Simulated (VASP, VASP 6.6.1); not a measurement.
# Lattice constant a of double-hcp lanthanum: PBE within 0.5 %, LDA and PBEsol too short

## The measurement

The reference is the lattice constant $a$ of bulk alpha-La, the double-hcp form stable at ambient conditions: $a = 3.772$ Å. It is quoted in "In situ and real-time monitoring of structure formation during non-reactive sputter deposition of lanthanum and reactive sputter deposition of lanthanum nitride" (2018, PubMed Central 6068614), where it serves as a literature value from a database entry (Beaudry & Palmer 1974). It is thus a second-hand number for bulk metal and not a result on the sputtered films. Neither method nor temperature is given with the value; we take it to be a room-temperature diffraction result, which is our own reading. The published structure refinement from which our starting cell derives has $a = 3.770$ Å, lower by 0.002 Å, a difference that does not matter here.

| compared with | measured | source's wording or label | method |
| --- | --- | --- | --- |
| lattice constant a of the conventional cell (Å) | 3.772 | a of alpha-La | not stated |

Conditions are those given with the value in the passage it was taken from; "not stated" means there, and the paper may say more elsewhere. The values are a selection: others may have been left out beforehand as unlike or outlying.

## Model and target

We look for the cheapest level of theory that gives $a$ within 0.5 % of the reference, or about 0.019 Å. That is tight enough to separate the common functionals, whose lattice constants for a soft metal can differ by several per cent, and wide enough to leave room for the effects that a static calculation omits. Thermal expansion up to room temperature and zero-point motion together should lengthen $a$ by roughly 0.1 to 0.2 % in a heavy metal like this one, so a good static value ought to lie slightly below the measured one.

The model is the four-atom double-hcp cell, nonmagnetic, with cell and atoms relaxed from the diffraction cell stretched by 3 % in volume. We begin with the local density approximation, go on to gradient-corrected functionals, and add dearer ingredients only where the results ask for them. Cutoff and k mesh are to be tested before a miss or a pass is put down to a functional. The axis $c$ and the volume are followed as a check on the shape of the cell, but are not compared here with a reference value.

System: La, space group P6_3/mmc (Lanthanum); P6_3/mmc (No. 194), 4 atoms in the cell; conventional a = 3.770, c = 12.159 A, from a published structure refinement (COD).

## 1. LDA as the simplest level

LDA is the simplest functional and sets the lower end of the scale. It usually overbinds, and in a soft metal such as lanthanum we expect $a$ to come out too short by a few per cent, outside the target.

**Run 1.** VASP 6.6.1: LDA; 450 eV, 12x12x4 k mesh; cell and atoms relaxed, relaxed twice, LASPH on.

Key lines of the input:
```
ALGO = Normal
EDIFF = 1E-06
EDIFFG = -0.006
ENCUT = 450
GGA = CA
IBRION = 2
ISIF = 3
ISMEAR = 1
LASPH = .TRUE.
NBANDS = 28
NELM = 100
NSW = 50
PREC = Accurate
SIGMA = 0.15
KPOINTS: Gamma, 12 12 4
PAW data sets: La (LDA 64)
```

Command:
```
mpirun -np 8 vasp_std
```

Selected lines of the output:
```
  volume of cell :      128.53
     3.588174655  0.000000000  0.000000000     0.278693234  0.160903614  0.000000000
     0.000000000  0.000000000 11.526951245     0.000000000  0.000000000  0.086753208
```

Converged; 1.8 min on 8 cores of Intel Xeon 6975P-C (Granite Rapids), shared host.

| quantity | run 1 | measured | deviation |
| --- | --- | --- | --- |
| lattice constant a of the conventional cell (Å) | 3.588 | 3.772 | −0.184 (−4.9 %) |
| volume of the conventional cell (Å³) | 128.53 |  |  |
| lattice constant c of the conventional cell (Å) | 11.527 |  |  |
| space group at the end | P6_3/mmc |  |  |
| pressure left at the end (GPa) | −0.01104 |  |  |

LDA gives $a = 3.588$ Å, 4.9 % below the reference and nearly ten times the tolerance. The sign is the usual one for LDA, and the omitted thermal and zero-point expansion is far too small to account for the gap. The cell shrinks almost uniformly: $c/a$ is 3.213, only slightly below the ratio of the diffraction cell (12.159 Å over 3.770 Å). The fault is therefore in the overall strength of the bonding much more than in the stacking direction.

## 2. Two gradient-corrected functionals

Gradient corrections weaken the bonding at little extra cost per step. We run PBE and PBEsol at the cutoff and mesh used for LDA, so that the functional is the main change. PBEsol was designed for the lattice constants of solids, but it usually stays closer to LDA than PBE does. With LDA so far short, we expect PBE to come nearer to the measured value here.

**Run 2.** VASP 6.6.1: PBE; 450 eV, 12x12x4 k mesh; cell and atoms relaxed, relaxed twice, LASPH on.

Key lines of the input, as changed from run 1:
```diff
- GGA = CA
+ GGA = PE
- PAW data sets: La (LDA 64)
+ PAW data sets: La (PBE 64)
```

Selected lines of the output:
```
  volume of cell :      148.63
     3.763856355  0.000000000  0.000000000     0.265684953  0.153393279  0.000000000
```

Converged; took 82 s.

**Run 3.** VASP 6.6.1: PBEsol; 450 eV, 12x12x4 k mesh; cell and atoms relaxed, relaxed twice, LASPH on.

Key lines of the input, as changed from run 2:
```diff
- GGA = PE
+ GGA = PS
```

Selected lines of the output:
```
  volume of cell :      136.11
     3.655629094  0.000000000  0.000000000     0.273550728  0.157934586  0.000000000
```

Converged; took 2.2 min.

| quantity | run 2 | run 3 | measured |
| --- | --- | --- | --- |
| lattice constant a of the conventional cell (Å) | 3.764 | 3.656 | 3.772 |
| volume of the conventional cell (Å³) | 148.63 | 136.11 |  |
| lattice constant c of the conventional cell (Å) | 12.115 | 11.761 |  |
| space group at the end | P6_3/mmc | P6_3/mmc |  |
| pressure left at the end (GPa) | 0.00962 | 0.00488 |  |

PBE gives $a = 3.764$ Å, 0.008 Å or 0.2 % below the reference and well inside the tolerance. PBEsol gives 3.656 Å, a miss of 3.1 % that recovers less than half of the LDA error. Both runs use the same lanthanum data set, cutoff and mesh, so the 0.108 Å between them comes from the functional. A functional made for the lattice constants of solids thus does much worse here than plain PBE.

## 3. Cutoff and in-plane mesh

PBE is the candidate, and its margin to the limit is about 0.011 Å. We test the numerical settings with PBEsol, which shares the data set with PBE: one run with the cutoff raised to 600 eV, one with the in-plane mesh raised to 15x15. This is indirect evidence for PBE, since the two functionals settle at different volumes, but it shows how sensitive lanthanum is to these settings and whether they could explain the PBEsol miss. We expect shifts of a few thousandths of an ångström at most.

**Run 4.** VASP 6.6.1: PBEsol; 600 eV, 12x12x4 k mesh; cell and atoms relaxed, relaxed twice, LASPH on.

Key lines of the input, as changed from run 3:
```diff
- ENCUT = 450
+ ENCUT = 600
```

Selected lines of the output:
```
     3.657322305  0.000000000  0.000000000     0.273424084  0.157861468  0.000000000
```

Converged; took 3.4 min.

**Run 5.** VASP 6.6.1: PBEsol; 450 eV, 15x15x4 k mesh; cell and atoms relaxed, relaxed twice, LASPH on.

Key lines of the input, as changed from run 3:
```diff
- KPOINTS: Gamma, 12 12 4
+ KPOINTS: Gamma, 15 15 4
```

Selected lines of the output:
```
  volume of cell :      136.14
     3.663043925  0.000000000 -0.000000000     0.272996999  0.157614891  0.000000000
     0.000000000  0.000000000 11.716035142     0.000000000 -0.000000000  0.085353107
```

Converged; took 2.6 min.

| quantity | run 4 | run 5 | measured |
| --- | --- | --- | --- |
| lattice constant a of the conventional cell (Å) | 3.657 | 3.663 | 3.772 |
| volume of the conventional cell (Å³) | 136.24 | 136.14 |  |
| lattice constant c of the conventional cell (Å) | 11.761 | 11.716 |  |
| space group at the end | P6_3/mmc | P6_3/mmc |  |
| pressure left at the end (GPa) | 0.00000 | 0.00716 |  |

Raising the cutoff lengthens $a$ by 0.002 Å, which is of no consequence here. The denser in-plane mesh lengthens it by 0.007 Å and shortens $c$ by 0.045 Å, while the volume stays almost the same, at 136.14 against 136.11 Å³. The mesh therefore acts on the shape of the cell: $c/a$ falls from 3.217 to 3.198. For a metal whose axial ratio is only weakly held this is plausible, and it means that $a$ alone is less settled than the volume.

Neither change comes near to closing the PBEsol gap of about 0.12 Å. For PBE, a mesh shift of this size in either direction would still fit within the margin of 0.011 Å, though it would use up much of it on the lower side. That is an estimate borrowed from another functional and not a convergence test of PBE itself.

## 4. The effect of spin-orbit coupling

Lanthanum is heavy enough for spin-orbit coupling to deserve a check before we settle on a scalar-relativistic level. We compare PBEsol with and without it on the same 9x9x4 mesh, a coarser sampling that keeps the dearer run affordable and lets mesh errors largely cancel in the difference. With the 4f shell essentially empty and the bonding carried by broad 5d and 6s bands, we expect only a small change in $a$. The run without coupling also adds a third point to the mesh series.

**Run 6.** VASP 6.6.1: PBEsol; 450 eV, 9x9x4 k mesh; cell and atoms relaxed, relaxed twice, LASPH on.

Key lines of the input, as changed from run 3:
```diff
- KPOINTS: Gamma, 12 12 4
+ KPOINTS: Gamma, 9 9 4
```

Selected lines of the output:
```
  volume of cell :      135.39
     3.651338705  0.000000000  0.000000000     0.273872155  0.158120162  0.000000000
```

Converged; took 1.7 min.

**Run 7.** VASP 6.6.1: PBEsol with spin-orbit coupling; 450 eV, 9x9x4 k mesh; cell and atoms relaxed, relaxed twice, LASPH on.

Key lines of the input, as changed from run 6:
```diff
+ GGA_COMPAT = .FALSE.
- NBANDS = 28
+ LMAXMIX = 6
+ LNONCOLLINEAR = .TRUE.
+ LSORBIT = .TRUE.
+ MAGMOM = 0 0 0 0 0 0 0 0 0 0 0 0
+ NBANDS = 56
```

Command:
```
mpirun -np 8 vasp_ncl
```

Selected lines of the output:
```
  external PRESSURE =       0.1902355 kB  Pullay stress =       0.0000000 kB
  volume of cell :      134.98
     3.647585756  0.000000000  0.000000000     0.274153938  0.158282850  0.000000000
```

Converged; took 8.9 min.

| quantity | run 6 | run 7 | measured |
| --- | --- | --- | --- |
| lattice constant a of the conventional cell (Å) | 3.651 | 3.648 | 3.772 |
| volume of the conventional cell (Å³) | 135.39 | 134.98 |  |
| lattice constant c of the conventional cell (Å) | 11.726 | 11.715 |  |
| space group at the end | P6_3/mmc | P6_3/mmc |  |
| pressure left at the end (GPa) | −0.01153 | 0.01902 |  |

With spin-orbit coupling $a$ is shorter by 0.004 Å and the volume smaller by 0.3 %. The coupled run also differs in its treatment of the gradient correction, in the density mixing and in the number of bands, and in so soft a metal the stopping thresholds of the two relaxations may contribute to a difference this small. We therefore take it as a rough indication of size and not as a precise spin-orbit shift. It is well below the tolerance, and its sign moves PBEsol slightly further from the reference.

The mesh series for PBEsol now reads 3.651, 3.656 and 3.663 Å for 9, 12 and 15 divisions in the plane. The value is still rising at the densest mesh, so the third decimal of $a$ is not settled. The whole spread is 0.012 Å, about a tenth of the PBEsol miss, which the in-plane sampling therefore cannot explain; the functional is the likely cause. The mesh along $c$ was the same in these three runs. For PBE the same spread would be comparable to the margin at the lower limit, so its pass remains tied to the 12x12x4 mesh.

We end the runs here. PBE meets the target at the cost of an ordinary gradient-corrected calculation, so the results do not ask for a dearer level. The check that would firm up the pass, PBE itself on a denser mesh, is not shown in this report, so our plan to test the settings first is met only indirectly for PBE.

## Collected results

| run | settings | lattice constant a of the conventional cell (Å) | deviation | cost |
| --- | --- | --- | --- | --- |
| 1 | LDA, 450 eV, 12x12x4 k mesh | 3.588 | −0.184 (−4.9 %) | 15 core-min |
| 2 | PBE, 450 eV, 12x12x4 k mesh | 3.764 | −0.008 (−0.2 %) | 11 core-min |
| 3 | PBEsol, 450 eV, 12x12x4 k mesh | 3.656 | −0.116 (−3.1 %) | 18 core-min |
| 4 | PBEsol, 600 eV, 12x12x4 k mesh | 3.657 | −0.115 (−3.0 %) | 27 core-min |
| 5 | PBEsol, 450 eV, 15x15x4 k mesh | 3.663 | −0.109 (−2.9 %) | 21 core-min |
| 6 | PBEsol, 450 eV, 9x9x4 k mesh | 3.651 | −0.121 (−3.2 %) | 13 core-min |
| 7 | PBEsol with spin-orbit coupling, 450 eV, 9x9x4 k mesh | 3.648 | −0.124 (−3.3 %) | 71 core-min |
|  | measured | 3.772 |  |  |

The runs in order, against the measurement:

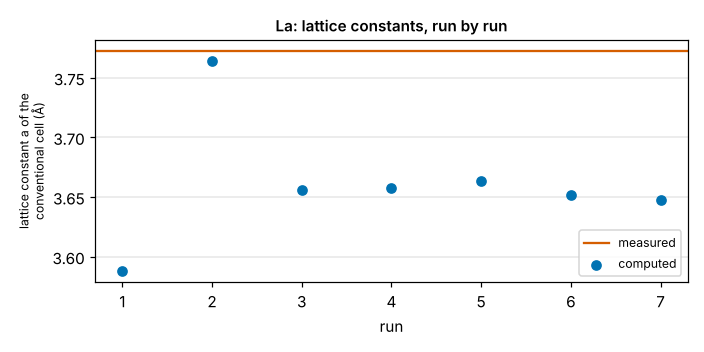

Further runs on the same system, made beside this series (convergence steps with loose settings among them):

| further | settings | lattice constant a of the conventional cell (Å) | deviation | cost |
| --- | --- | --- | --- | --- |
| F1 | r2SCAN, 450 eV, 12x12x4 k mesh | 3.778 | +0.006 (+0.2 %) | 46 core-min |
| F2 | r2SCAN + rVV10, 450 eV, 12x12x4 k mesh | 3.747 | −0.025 (−0.7 %) | 1.7 core-h |
| F3 | vdW-DF-cx, 450 eV, 12x12x4 k mesh | 3.665 | −0.107 (−2.8 %) | 85 core-min |
| F4 | PBEsol + D3(BJ), 450 eV, 12x12x4 k mesh | 3.536 | −0.236 (−6.3 %) | 18 core-min |
| F5 | PBEsol + D4, 450 eV, 12x12x4 k mesh | 3.617 | −0.155 (−4.1 %) | 18 core-min |
| F6 | PBEsol, 220 eV, 12x12x4 k mesh | 3.650 | −0.122 (−3.2 %) | 6.2 core-min |
| F7 | PBEsol, 450 eV, 6x6x2 k mesh | 3.669 | −0.103 (−2.7 %) | 9.8 core-min |
|  | measured | 3.772 |  |  |

## Outcome

PBE meets the target: $a = 3.764$ Å lies 0.2 % below the reference, at a cost of 11 core-minutes. LDA misses by 4.9 % and PBEsol by about 3 %.

The change of functional was the decisive step. The tests showed that cutoff and mesh cannot explain the PBEsol miss, but they were made on a functional that fails and support PBE only indirectly. The effects of the smearing width and of the lanthanum data set, which was made for PBE and also used with PBEsol, are not shown in this report. With PBEsol, $a$ varies by about 0.018 Å over all the meshes, from 3.651 Å (9x9x4) to 3.669 Å (the loose 6x6x2), and not steadily. PBE has a margin of only 0.011 Å at the lower limit, and its own mesh convergence is not shown in this report. The test of spin-orbit coupling was the dearest of the series and changed little.

r2SCAN also passes, 0.2 % above the reference, at about four times the cost of PBE. The two cannot be ranked on such small deviations. Dispersion terms do not help: both corrections to PBEsol shorten $a$ further, and rVV10 takes r2SCAN out of the target.

Thermal and zero-point expansion, roughly 0.1 to 0.2 %, would bring PBE closer to the reference and r2SCAN slightly further from it, with both still inside the target. The closeness of PBE may nevertheless contain a cancellation. Semilocal functionals tend to place the empty 4f states too low, which could strengthen the bonding and offset PBE's usual tendency to overestimate lattice constants. This is a conjecture, and evidence for it is not shown in this report. The verdict concerns $a$ alone, since a comparison of $c$ and the volume with a reference is not shown in this report.

[Logs are printed without paths, hosts, clocks, repeated set-up lines and the standing remarks that a program may print on its own settings, such as how far it seeks lower states.]

[The runs shown are a pick from a larger set of finished runs; failed, doubtful and other runs were left out of it ahead of writing. So were measured values far from every level or from commonly accepted values, and agreement can look better than it is. Lines of input and output are excerpts and may be shortened.]
